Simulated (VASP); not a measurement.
# Ti (P6_3/mmc) under biaxial (0001) strain: normal strain, stress and strain energy with r2SCAN

A common rule of thumb says that a metal responds linearly to strains of up to about one per cent: stress proportional to strain, energy proportional to its square. Estimates for strained films rest on it, since two constants then give the thickness change and the stress. The series tests the rule on hexagonal titanium, stretched and compressed equally in all directions of the (0001) plane by up to 2 %, with the normal direction free to respond. Strains are counted from the cell relaxed with r2SCAN, stress is positive in tension, and energy is counted per atom from the relaxed crystal. The questions are which elastic moduli follow, and at what strain each of the three quantities leaves the linear law.

## Method

The start is an entry of the ASE's table of reference states database. The crystal was relaxed with r2SCAN. Equal strain is imposed in the (0001) plane; the strain along the normal is adjusted until the normal stress vanishes, and the atoms are relaxed with r2SCAN. VASP 6.6.1, plane waves with PAW, cutoff 450 eV, no spin polarisation, no spin-orbit coupling, k mesh 23×23×13, static lattice. The same in all rows: band gap on the k mesh at r2SCAN: 0.000 eV.

Notes on method and selection:

- Runs that did not converge, have known faults or may not be shown are not listed, and runs on Ansatz's PAW sets soft_1 and soft_2 are kept to separate tables.

Columns:

- strain (%): strain in the plane (tension positive).
- normal strain (%): strain along the normal.
- stress (GPa): in-plane stress, tension positive.
- strain energy (meV/atom): energy per atom above the relaxed crystal.

Input lines of one member:

```
PREC = Accurate
ENCUT = 450
EDIFF = 1E-07
NELM = 120
ISMEAR = 1
SIGMA = 0.15
LREAL = .FALSE.
ALGO = Normal
METAGGA = R2SCAN
LASPH = .TRUE.
NBANDS = 18
LORBIT = 11
KPAR = 2
IBRION = 1
NSW = 25
```

Command (options for logging and memory left out): `mpirun -np 2 vasp_std`

## The series

| member | strain (%) | normal strain (%) | stress (GPa) | strain energy (meV/atom) |
| --- | --- | --- | --- | --- |
| −2 % | −2.0 | 1.560 | −4.69 | 11.38 |
| −1.5 % | −1.5 | 1.157 | −3.48 | 6.633 |
| −1 % | −1.0 | 0.758 | −2.29 | 3.171 |
| −0.5 % | −0.5 | 0.390 | −1.13 | 0.9760 |
| 0 % | 0.0 | 0.005 | −0.02 | 0.02151 |
| +0.5 % | 0.5 | −0.384 | 1.05 | 0.2546 |
| +1 % | 1.0 | −0.771 | 2.09 | 1.619 |
| +1.5 % | 1.5 | −1.149 | 3.10 | 4.074 |
| +2 % | 2.0 | −1.515 | 4.09 | 7.619 |

normal strain (%) against strain (%):

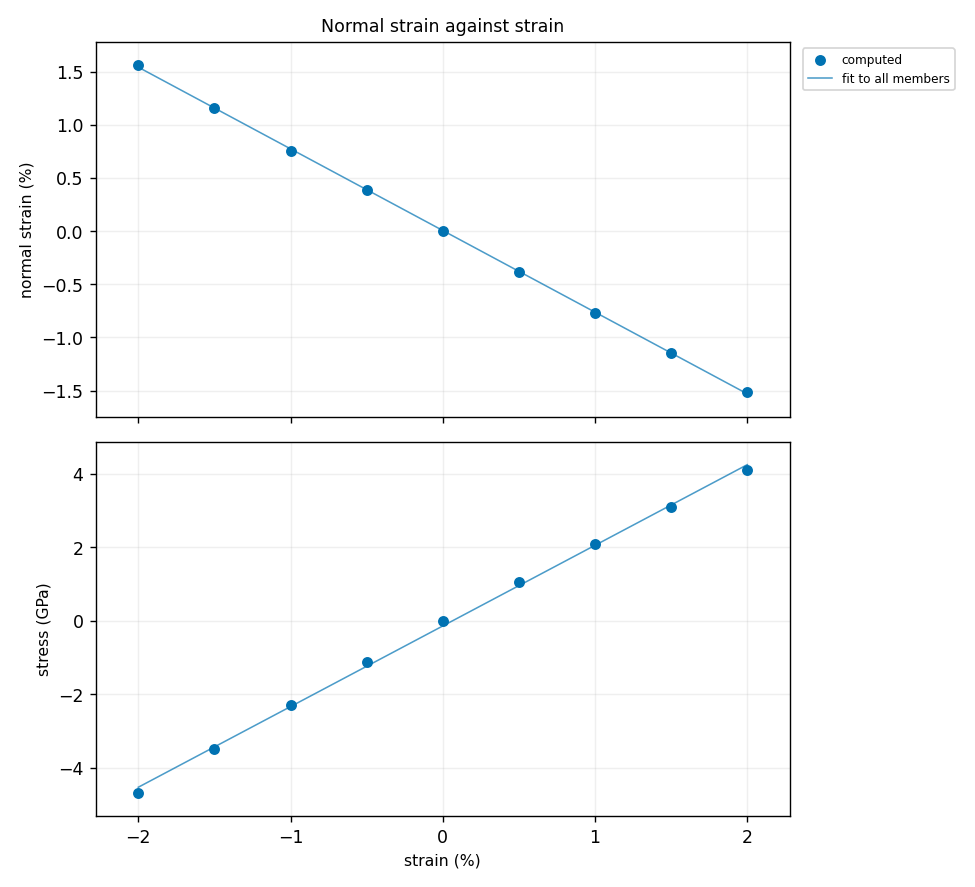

Least-squares fits to the whole series, with x = strain (%); R² and errors in the fitted variable (y, or ln y where the fit is in ln y):

| y | members | fit | R² | rms residual | leave-one-out rms | the same for the mean of the others |
| --- | --- | --- | --- | --- | --- | --- |
| normal strain (%) | 9 | y = 0.005667 − 0.7683 x | 1.00 | 0.010 | 0.015 | 1.1 |
| stress (GPa) | 9 | y = −0.1422 + 2.193 x | 1.00 | 0.10 | 0.14 | 3.2 |

## The trend and its physics

From −2 % to +2 % the normal strain falls from 1.560 to −1.515 %, while the stress rises from −4.69 to 4.09 GPa. The energy grows on both sides of zero, but at equal magnitude of strain it is always higher in compression.

The simplest model assumes that stress is linear in strain, that the crystal has hexagonal symmetry, that the normal stress is zero, and that the starting cell is free of stress and lies at the energy minimum. With in-plane strain $\varepsilon$ and normal strain $\varepsilon_n$, Hooke's law reads

$$\sigma = (C_{11}+C_{12})\,\varepsilon + C_{13}\,\varepsilon_n, \qquad \sigma_n = 2C_{13}\,\varepsilon + C_{33}\,\varepsilon_n .$$

Setting $\sigma_n = 0$ gives the normal strain:

$$\varepsilon_n = -\rho\,\varepsilon, \qquad \rho = \frac{2C_{13}}{C_{33}} .$$

Inserting this in the first equation gives the stress:

$$\sigma = M\varepsilon, \qquad M = C_{11}+C_{12}-\frac{2C_{13}^2}{C_{33}} .$$

Only the two in-plane directions do work. With $v$ the volume per atom, the energy is the integral of $2v\sigma$ over the strain:

$$E = vM\varepsilon^2 .$$

The three parameters are $\rho$, $M$ and $v$. The series therefore yields the biaxial modulus $M$ and the ratio $C_{13}/C_{33}$, but not the four elastic constants one by one; those require other deformations, such as a strain along the normal alone.

The fitted slopes are $\rho = 0.768$ and $M = 2.193$ GPa per %, or 2.193 × 100 = 219 GPa, so $C_{13}/C_{33} = 0.768 / 2 = 0.384$. The normal contracts under tension because this lowers the energy cost of the added volume. The compensation is partial: to first order the volume still grows by 2 − 0.768 = 1.232 % per % of in-plane strain.

## Testing the model

The model is fixed on the members −1 % and +1 %. Taking half the difference of their strains and stresses removes any constant offset and any term quadratic in strain; taking the mean of their energies removes any linear term.

- $\rho$ = (0.758 + 0.771) / 2.0 = 0.7645
- $M$ = (2.09 + 2.29) / 2.0 = 2.19 GPa per %, or 2.19 × 100 = 219 GPa
- $vM$ = (3.171 + 1.619) / 2 = 2.395 meV/atom per %², or 2.395 × 10 = 23.95 eV/atom for strain as a fraction

Hence $v$ = 23.95 / 219 = 0.1094 eV/GPa. With 1 eV/Å³ = 160.2 GPa this is 0.1094 × 160.2 = 17.5 Å³ per atom.

**Member −2 %**

- Normal strain: 0.7645 × 2.0 = 1.529 %; table 1.560 %.
- Stress: 2.19 × (−2.0) = −4.38 GPa; table −4.69 GPa.
- Energy: 2.395 × 4.0 = 9.58 meV/atom; table 11.38 meV/atom.

**Member −0.5 %**

- Normal strain: 0.7645 × 0.5 = 0.382 %; table 0.390 %.
- Stress: 2.19 × (−0.5) = −1.10 GPa; table −1.13 GPa.
- Energy: 2.395 × 0.25 = 0.599 meV/atom; table 0.9760 meV/atom.

**Member +0.5 %**

- Normal strain: −0.7645 × 0.5 = −0.382 %; table −0.384 %.
- Stress: 2.19 × 0.5 = 1.10 GPa; table 1.05 GPa.
- Energy: 2.395 × 0.25 = 0.599 meV/atom; table 0.2546 meV/atom.

**Member +2 %**

- Normal strain: −0.7645 × 2.0 = −1.529 %; table −1.515 %.
- Stress: 2.19 × 2.0 = 4.38 GPa; table 4.09 GPa.
- Energy: 2.395 × 4.0 = 9.58 meV/atom; table 7.619 meV/atom.

The normal strain is met to about 0.03 % of strain and the stress to about 7 %. The energy misses by about 20 % at ±2 % and by about 60 % at ±0.5 %. The errors of stress and energy are relative to the model values.

## Where the trend breaks

Largest departures from the fit to the whole series:

| member | normal strain (%) | fit | computed − fit | in rms residuals |
| --- | --- | --- | --- | --- |
| −2 % | 1.560 | 1.542 | +0.018 | 1.7 |
| −1 % | 0.758 | 0.774 | −0.016 | 1.6 |
| +2 % | −1.515 | −1.531 | +0.016 | 1.6 |
| +1 % | −0.771 | −0.763 | −0.008 | 0.8 |

The stress lies below the model line $\sigma = M\varepsilon$ fixed at ±1 % on both sides, by 4.38 − 4.09 = 0.29 GPa at +2 % and 4.69 − 4.38 = 0.31 GPa at −2 %. Here the assumption of a constant modulus fails. Between neighbouring rows the slope drops steadily from 2.42 GPa per % at the compressed end to (4.09 − 3.10) / 0.5 = 1.98 at the stretched end, as expected when repulsion stiffens shortened bonds and stretched bonds soften.

The energy fails differently: its relative error is largest at small strain, the mark of a term linear in strain. Half the difference between +0.5 % and −0.5 % is (0.2546 − 0.9760) / 2 = −0.361 meV/atom, or −0.361 / 0.5 = −0.72 meV/atom per %. For strain as a fraction this is −0.72 / 10 = −0.072 eV/atom. Divided by $2v$, it gives a stress of −0.072 / (2 × 0.1094) = −0.33 GPa, yet the 0 % row lists −0.02 GPa.

The assumption that fails is that the starting cell lies at the energy minimum. The likely cause is the plane-wave basis: the cell was relaxed with the basis held fixed, and the stress then omits the Pulay term, which makes the cell slightly too small. The strained cells each have their own basis at the same cutoff, so their energies favour expansion. The change of basis may also explain why the energy in the 0 % row is not exactly zero. If the missing stress is isotropic, it works on the volume, which grows by 2 − 0.7645 = 1.236 % per % of in-plane strain, and its size is about 0.072 / (0.1094 × 1.236) = 0.5 GPa. A higher cutoff should shrink it, which would test the explanation.

## Conclusions

The linear law for the normal strain holds over the whole range from −2 % to +2 %. For the stress it holds to about 5 % up to ±1 % and to about 7 % at ±2 %. The rule of thumb thus stands for these two quantities. The strain energy follows the quadratic law only after averaging over tension and compression; a modulus taken from the energies of one side alone would be wrong. The linear term behind this most likely belongs to the starting cell of the calculation and is no property of titanium.

An effect left out altogether is plastic flow. Ordinary bulk titanium yields at very roughly some tenths of a GPa to 1 GPa, so at 2 % strain its stress would stay several GPa below the values for this perfect crystal.

[Logs are printed without paths, hosts, clocks, repeated set-up lines and the standing remarks that a program may print on its own settings, such as how far it seeks lower states.]
